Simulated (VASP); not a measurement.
# Relaxed cell volume of fcc Pt at eight levels of theory, from LDA to r2SCAN + rVV10, against the diffraction cell

By the usual rule of thumb LDA makes a crystal too small, PBE makes it too large, PBEsol falls between them, and a dispersion term shrinks the cell to which it is added. The problem is to test this on fcc Pt and to find the sizes. The matter is practical, because an error in volume carries over to whatever is calculated in that cell, such as elastic constants, the width of the d band or the strain in a supported film. At each of eight levels the cell is relaxed as a static lattice at zero pressure. Its volume is given relative to the diffraction cell of 15.09 Å³ per atom, and a positive error means too large a cell.

## Computational details

The start is the cell of a diffraction database, 15.09 Å³ per atom, whose temperature is that of the entry, mostly ambient. VASP 6.6.1, plane waves with PAW, cutoff 450 eV; cell and atoms fully relaxed at zero pressure at each level, static lattice, no spin polarisation, no spin-orbit coupling. All ran on Intel(R) Xeon(R) 6975P-C (Granite Rapids), shared with other work, so times are rough. The PAW data sets differ between levels: LDA sets for LDA; PBE sets for PBE, PBEsol, TPSS, optB86b-vdW and r2SCAN. Non-spherical gradient terms inside the PAW spheres (LASPH) are on in the rows so marked and off in the others; they change results slightly and raise the cost.

Notes on method and selection:

- The diffraction cell holds zero-point and thermal expansion, typically 0.5 to 2 % in volume at room temperature, which a static relaxation lacks.
- Crystals whose PBE volume lies more than 1.5 % under or 25 % over the diffraction cell, or whose cell differs by over 0.3 % from another measurement, were left out.
- Non-spherical gradient terms in the PAW spheres (LASPH) were on for optB86b-vdW, TPSS, r2SCAN and r2SCAN + rVV10, and off for LDA, PBE, PBEsol and PBEsol + D3(BJ); where rows differ in this, it bears on volumes, moments and cost.
- Runs that did not converge, have known faults or may not be shown are not listed, and runs on Ansatz's PAW sets soft_1 and soft_2 are kept to separate tables.

Columns:

- volume error (%): relaxed volume relative to the diffraction cell.
- a (Å): lattice constant a of the conventional cell.
- cost per step (core-s): processor time per ionic step of the relaxation.

Input lines of one member:

```
PREC = Accurate
ENCUT = 450
EDIFF = 1E-06
NELM = 100
ISMEAR = 1
SIGMA = 0.1
LREAL = .FALSE.
ALGO = Normal
GGA = PS
NBANDS = 11
LORBIT = 11
KPAR = 2
IBRION = 2
NSW = 50
ISIF = 3
```

Command (options for logging and memory left out): `mpirun -np 2 vasp_std`

## Numbers

| member | volume error (%) | a (Å) | cost per step (core-s) | remark |
| --- | --- | --- | --- | --- |
| PBE | 3.55 | 3.969 | 2.7 |  |
| optB86b-vdW | 2.08 | 3.950 | 11 | LASPH on |
| TPSS | 1.81 | 3.947 | 17 | LASPH on |
| r2SCAN | 1.66 | 3.945 | 14 | LASPH on |
| r2SCAN + rVV10 | 0.94 | 3.935 | 24 | LASPH on |
| PBEsol | −0.43 | 3.917 | 2.5 |  |
| LDA | −1.89 | 3.898 | 2.1 |  |
| PBEsol + D3(BJ) | −3.14 | 3.882 | 2.8 |  |

volume error (%) by member:

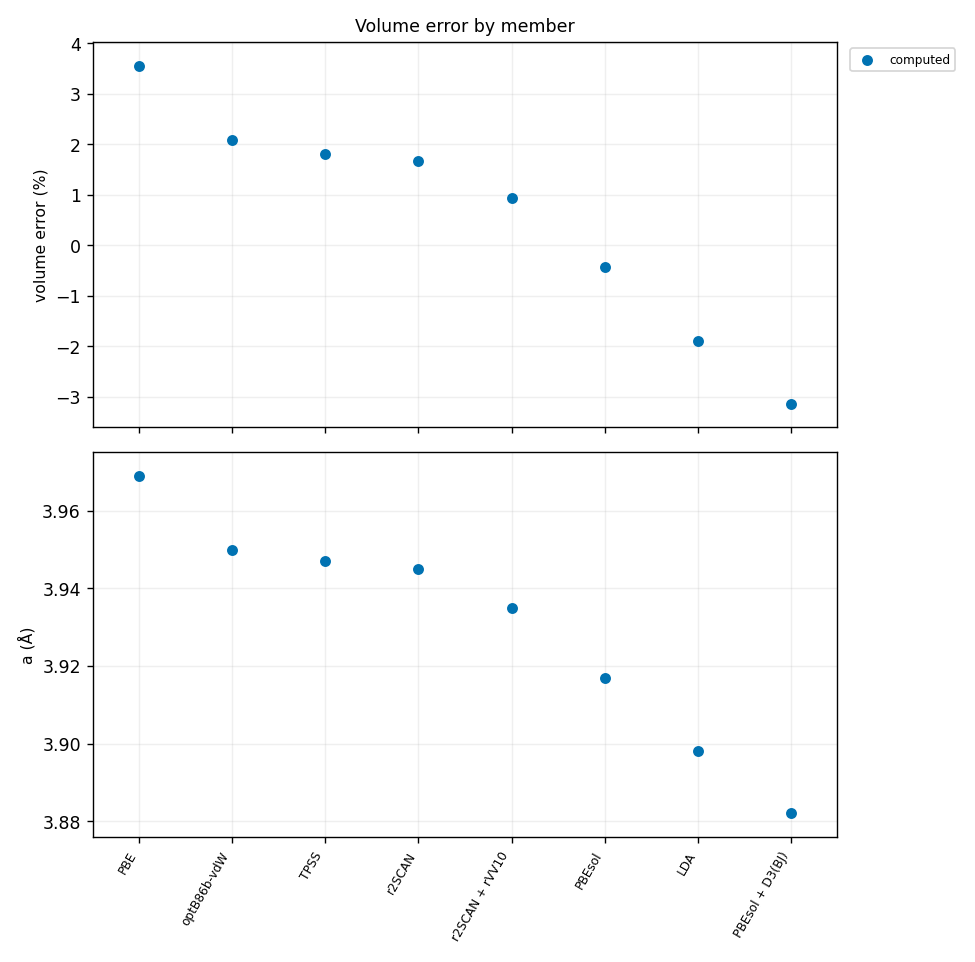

## Why the values move as they do

The rule of thumb holds here in every part. LDA lies at −1.89 %, PBEsol at −0.43 % and PBE at +3.55 %. Both added dispersion terms shrink the cell of their parent functional, but by unequal amounts: −3.14 + 0.43 = −2.71 percentage points for D3(BJ) on PBEsol, and 0.94 − 1.66 = −0.72 points for rVV10 on r2SCAN.

A simple model starts from LDA and adds the other terms as small pressures.

1. Near its minimum the LDA energy per atom is taken as quadratic in the volume V, E = E₀ + B(V − V_L)²/(2V_L), with bulk modulus B and LDA volume V_L.
2. Gradient-corrected exchange adds −μG(V). Here μ is the coefficient of the squared reduced density gradient, and G is positive and grows as the atoms move apart and the density becomes less uniform. Over a few per cent in volume its slope g = dG/dV is taken as constant.
3. Dispersion adds an attraction that weakens with distance, so its energy rises with V, with a slope h > 0 that is also taken as constant.
4. Correlation is otherwise left as in LDA.

Setting dE/dV to zero gives B(V − V_L)/V_L − μg + h = 0, and hence V = V_L(1 + μg/B − h/B). Relative to the diffraction cell, and with the small difference between V_L and that cell neglected in the correction terms, the volume error in per cent is

x = x_L + kμ − d, with k = 100 g/B and d = 100 h/B.

The three parameters are the LDA error x_L, the expansion k per unit of gradient coefficient, and the contraction d due to dispersion. The signs explain the rule of thumb: gradient corrections to exchange push the atoms apart, and dispersion pulls them together.

## Testing the model

The model is fixed on LDA and PBE. Their exchange coefficients μ are 0 and roughly 0.22. LDA gives x_L = −1.89, and PBE gives

k = (3.55 + 1.89) / 0.22 ≈ 25 % per unit of μ.

Neither member has a dispersion term, so d is left at zero. The other functionals share a coefficient of roughly 0.12 for slowly varying densities, and the model therefore gives them all the same error:

x = −1.89 + (3.55 + 1.89) × 0.12 / 0.22 ≈ 1.1 %.

Set against the table, as calculated error minus model:

- PBEsol: −0.43 − 1.1 ≈ −1.5 points
- r2SCAN: 1.66 − 1.1 ≈ +0.6 points
- TPSS: 1.81 − 1.1 ≈ +0.7 points
- optB86b-vdW: 2.08 − 1.1 ≈ +1.0 points

The two members with an added dispersion term, also taken with d = 0, miss by 0.94 − 1.1 ≈ −0.2 points (r2SCAN + rVV10) and −3.14 − 1.1 ≈ −4.2 points (PBEsol + D3(BJ)).

The mean size of the six misses is (1.5 + 0.6 + 0.7 + 1.0 + 0.2 + 4.2) / 6 ≈ 1.4 points. The same six volume errors scatter about their own mean by 1.5 points on average, so the model does hardly better than that mean. It gives the direction of the gradient correction, but it cannot put functionals with the same μ in order, and no rule for estimating a further functional follows from it.

## Exceptions

PBEsol falls 1.5 points below the model, and the assumption that most likely fails is the one on correlation. Gradient terms in correlation favour a more uniform density and so oppose the expansion. PBEsol keeps a share 0.12 / 0.22 ≈ 0.55 of PBE's exchange coefficient but roughly 0.7 of its correlation coefficient, so the opposing part weighs more and the cell comes out smaller.

optB86b-vdW, TPSS and r2SCAN lie 0.6 to 1.0 points above the model. The first replaces gradient correlation, which opposes the expansion, by a non-local term that also carries dispersion; the other two also depend on the kinetic-energy density. These differences may account for the sign, but the table does not separate them. LASPH, on in these three and off in the two fixing members, probably contributes a few tenths of a point at most.

PBEsol + D3(BJ) is 4.2 points too low, of which 2.71 come from D3(BJ) and the rest from its parent. D3(BJ) sums over pairs of atoms without the screening by conduction electrons, and in metals this is known to overstate the attraction. The near agreement of r2SCAN + rVV10 is a cancellation between a parent that lies too high and the contraction by rVV10.

## Cost

LDA, PBE, PBEsol and PBEsol + D3(BJ) take 2.1 to 2.8 core-seconds per ionic step, which is no real difference on shared machines. The other four take 11 to 24, part of which is due to LASPH. r2SCAN costs about 14 / 2.5 = 5.6 times as much per step as PBEsol, and r2SCAN + rVV10 about 24 / 2.5 = 9.6 times.

For the volume of Pt this extra expense buys nothing over PBEsol: all four dearer levels lie farther from the diffraction cell, and allowing for thermal expansion moves them farther still from the reference. They do improve on PBE, but so does PBEsol at PBE's price.

## Closing remarks

For this one metal PBE is farthest from the diffraction cell and PBEsol nearest. Both added dispersion terms contract the cell; this brings r2SCAN closer to the diffraction cell and takes PBEsol farther away.

The PBE and PBEsol + D3(BJ) cells were relaxed a second time from their own relaxed cells and the others only once, which probably matters little here. No omitted effect is likely to exceed the full spread of 3.55 + 3.14 = 6.69 points. The largest is probably zero-point and thermal expansion, typically 0.5 to 2 %, which the measured cell contains and the static lattice lacks. An ideal static calculation should therefore come out at about −0.5 to −2 %. PBE remains the worst level under this correction. PBEsol stays ahead of LDA only if the expansion is below (0.43 + 1.89) / 2 = 1.16 %, which is likely for a metal as stiff and heavy as Pt.

[Logs are printed without paths, hosts, clocks, repeated set-up lines and the standing remarks that a program may print on its own settings, such as how far it seeks lower states.]
